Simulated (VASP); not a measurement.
# Pressure and energy of hexagonal Re within 6 % of its equilibrium volume, PBEsol

Rhenium is a close-packed hexagonal metal with a 5d band near half filling. Its occupied d states are therefore mostly bonding ones, and the metal strongly resists a change of volume. My question is how its pressure and energy change as the cell is scaled about equilibrium, and whether one pair of constants describes both. This matters because the same constants turn a volume into a pressure, or a strain into an energy cost. The pressure comes from the stress tensor and is positive under compression. The energy is per atom, above the lowest point of the series, and volume changes are relative to the fitted minimum at 14.55 Å³ per atom.

## Method

A cell from a diffraction database, relaxed at this level and then scaled evenly, fractional positions kept. VASP 6.6.1, plane waves with PAW, PBEsol, cutoff 400 eV, k mesh 11×11×6, no spin polarisation, no spin-orbit coupling, static lattice. A Birch-Murnaghan fit to the energies has its minimum at 14.55 Å³ per atom.

Notes on method and selection:

- The pressure is that of a finite plane-wave basis, so it need not vanish exactly at the minimum of the energy.
- Only series whose fit has its minimum inside the range and an error under 0.5 meV per atom are shown.
- Where rows or columns differ in functional or spin-orbit coupling, non-spherical gradient terms in the PAW spheres (LASPH) may be on in some and off in others.
- Runs that did not converge, have known faults or may not be shown are not listed, and runs on Ansatz's PAW sets soft_1 and soft_2 are kept to separate tables.

Columns:

- volume change (%): volume relative to the fitted equilibrium volume.
- pressure (GPa): pressure from the stress tensor (positive: compressed).
- energy (meV/atom): energy per atom above the lowest point of the series.

Input lines of one member:

```
PREC = Accurate
ENCUT = 400
EDIFF = 1E-06
NELM = 100
ISMEAR = 1
SIGMA = 0.2
LREAL = .FALSE.
ALGO = Normal
GGA = PS
NBANDS = 13
LASPH = .TRUE.
LORBIT = 11
KPAR = 2
ISIF = 2
```

Command (options for logging and memory left out): `mpirun -np 2 vasp_std`

## The series

| member | volume change (%) | pressure (GPa) | energy (meV/atom) |
| --- | --- | --- | --- |
| 13.68 Å³ | −5.99 | 28.22 | 72.7 |
| 13.97 Å³ | −3.99 | 17.76 | 31.1 |
| 14.26 Å³ | −1.99 | 8.37 | 7.4 |
| 14.55 Å³ | 0.01 | −0.05 | 0.0 |
| 14.85 Å³ | 2.01 | −7.60 | 7.0 |
| 15.14 Å³ | 4.01 | −14.37 | 27.0 |
| 15.43 Å³ | 6.01 | −20.43 | 58.7 |

pressure (GPa) against volume change (%):

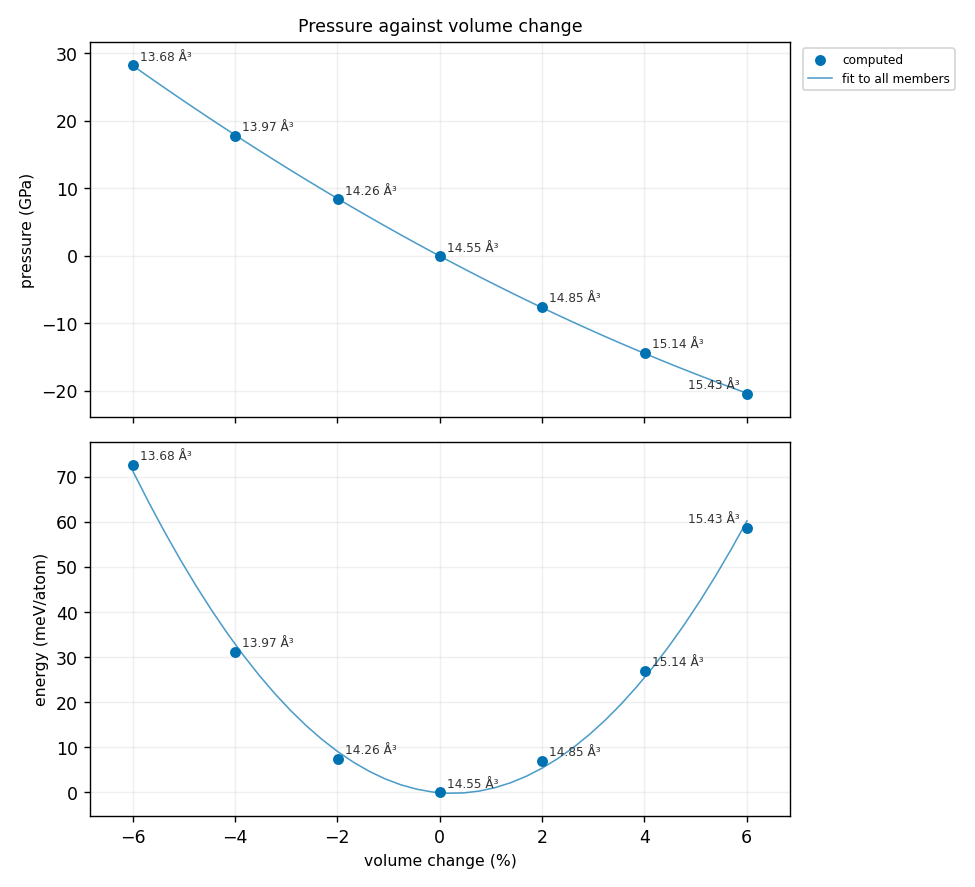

Least-squares fits to the whole series, with x = volume change (%); R² and errors in the fitted variable (y, or ln y where the fit is in ln y):

| y | members | fit | R² | rms residual | leave-one-out rms | the same for the mean of the others |
| --- | --- | --- | --- | --- | --- | --- |
| pressure (GPa) | 7 | y = −0.01389 − 4.041 x + 0.1096 x² | 1.00 | 0.085 | 0.23 | 19 |
| energy (meV/atom) | 7 | y = −0.09078 − 0.9401 x + 1.827 x² | 1.00 | 1.5 | 3.9 | 30 |

## What drives the series

The pressure falls at every step of expansion, from 28.22 GPa in the smallest cell to −20.43 GPa in the largest. The fall becomes gentler: it is (28.22 − 17.76) / 2.00 = 5.23 GPa per percent between the two smallest cells and (20.43 − 14.37) / 2.00 = 3.03 GPa per percent between the two largest. The energy rises on both sides of the minimum, more steeply under compression.

The cause, from the general theory of metallic bonding, is that repulsion grows faster than d bonding as the atoms approach. Under expansion both fade and the metal becomes less stiff, so each further step of volume adds less tension. The columns show only the sum of the two.

For a model I assume that the static energy is a smooth function of volume alone, that the pressure vanishes at the fitted minimum $V_0$, and that two terms in the strain suffice. With $x$ the volume change in percent, the pressure is then

$$P = -a x + b x^2 .$$

The bulk modulus is $B = -V\,dP/dV$. At $x = 0$ this gives

$$B_0 = 100\,a .$$

Differentiating $B$ once more with respect to pressure gives

$$B' = 200\,b/a - 1 .$$

A positive $b$ makes the pressure curve flatten on expansion, as the rows do.

The energy needs no new constant. Since $dE = -P\,dV$ and $dV = V_0\,dx/100$, integration from the minimum gives

$$\Delta E = \frac{k V_0}{100}\left(\frac{a x^2}{2} - \frac{b x^3}{3}\right),$$

where $k = 6.242$ meV per GPa Å³ converts the units. The square term is the same on both sides of the minimum. The cubic term adds energy under compression and removes it under expansion, so the flattening of the pressure and the lopsided energy well are one effect.

## Testing the model

I fix the model on 13.97 Å³ and 15.14 Å³, one cell on each side of the minimum. Dividing the pressure by $x$ gives $-a + b x$, so the two rows yield

- 17.76 / (−3.99) = −4.4511 GPa per percent
- −14.37 / 4.01 = −3.5835 GPa per percent
- $b$ = (4.4511 − 3.5835) / (4.01 + 3.99) = 0.10845 GPa per percent squared
- $a$ = 4.4511 − 0.10845 × 3.99 = 4.0184 GPa per percent

Hence $B_0$ is 100 × 4.0184 = 402 GPa and $B'$ is 200 × 0.10845 / 4.0184 − 1 = 4.40.

The pressures of four other cells follow, in GPa:

- 13.68 Å³: 4.018 × 5.99 + 0.1084 × 5.99² = 27.96; table 28.22
- 14.26 Å³: 4.018 × 1.99 + 0.1084 × 1.99² = 8.43; table 8.37
- 14.85 Å³: −4.018 × 2.01 + 0.1084 × 2.01² = −7.64; table −7.60
- 15.43 Å³: −4.018 × 6.01 + 0.1084 × 6.01² = −20.23; table −20.43

Over the five rows not used to fix it, the model has an rms miss of about 0.15 GPa, against 19 GPa for the mean of the others.

The energies are a stronger test, since $a$ and $b$ come from pressures alone; the energies have fixed only the position of the minimum. The prefactor is 6.242 × 14.55 / 100 = 0.908. In meV per atom, the two end cells give

- 13.68 Å³: 0.908 × (4.018 × 5.99² / 2 + 0.1084 × 5.99³ / 3) = 72.5; table 72.7
- 15.43 Å³: 0.908 × (4.018 × 6.01² / 2 − 0.1084 × 6.01³ / 3) = 58.8; table 58.7

In every row the model energy is within about 0.2 meV of the table, so stress and energy tell the same story. They must do so if the stress is the true derivative of the energy, so the agreement checks the numerics and the two-term form, not a separate law.

## Members off the line

The misses in pressure have a pattern. Table minus model is +0.26 GPa at 13.68 Å³, −0.06 at 14.26 Å³, +0.04 at 14.85 Å³ and −0.20 at 15.43 Å³. The assumption most likely to fail is the cut after two terms.

If the bulk modulus grows linearly with pressure, the next term is $-c x^3$ with $c = a(B'+1)(B'+2)/60000$, or 4.018 × (4.40 + 1) × (4.40 + 2) / 60000 = 0.0023. Because the model is pinned near ±4 %, the expected miss is $-c(x^3 - 16x)$. That amounts to 0.0023 × 120 = 0.28 GPa near ±6 %, positive under compression and negative under expansion, and to about 0.06 GPa of the opposite sign near ±2 %. The signs agree in all four rows, and the sizes roughly.

The printed parabola for the energy breaks down sooner, with an rms residual of 1.5 meV, because it has no cubic term. Its linear term of −0.9401 meV per percent stands in for the missing one. Read as a pressure at the minimum it would mean 0.9401 / 0.908 = 1.04 GPa, whereas the stress there is −0.05 GPa.

## What to take away

Between −5.99 % and 6.01 %, two constants taken from the pressure reproduce both columns. Without the square term, that is with a pressure linear in volume, the end pressures would be missed by about 4 GPa. Series with a poor equation-of-state fit were left out beforehand, so the smoothness seen here is no evidence that other metals behave as smoothly.

No omitted effect that I know of approaches the 28.22 + 20.43 = 48.65 GPa spanned by the table. Atomic vibration probably does exceed the model's misses: it adds a positive pressure at fixed volume, of the order of 1 GPa, which grows with temperature. It would shift the equilibrium to a slightly larger volume.

[Logs are printed without paths, hosts, clocks, repeated set-up lines and the standing remarks that a program may print on its own settings, such as how far it seeks lower states.]
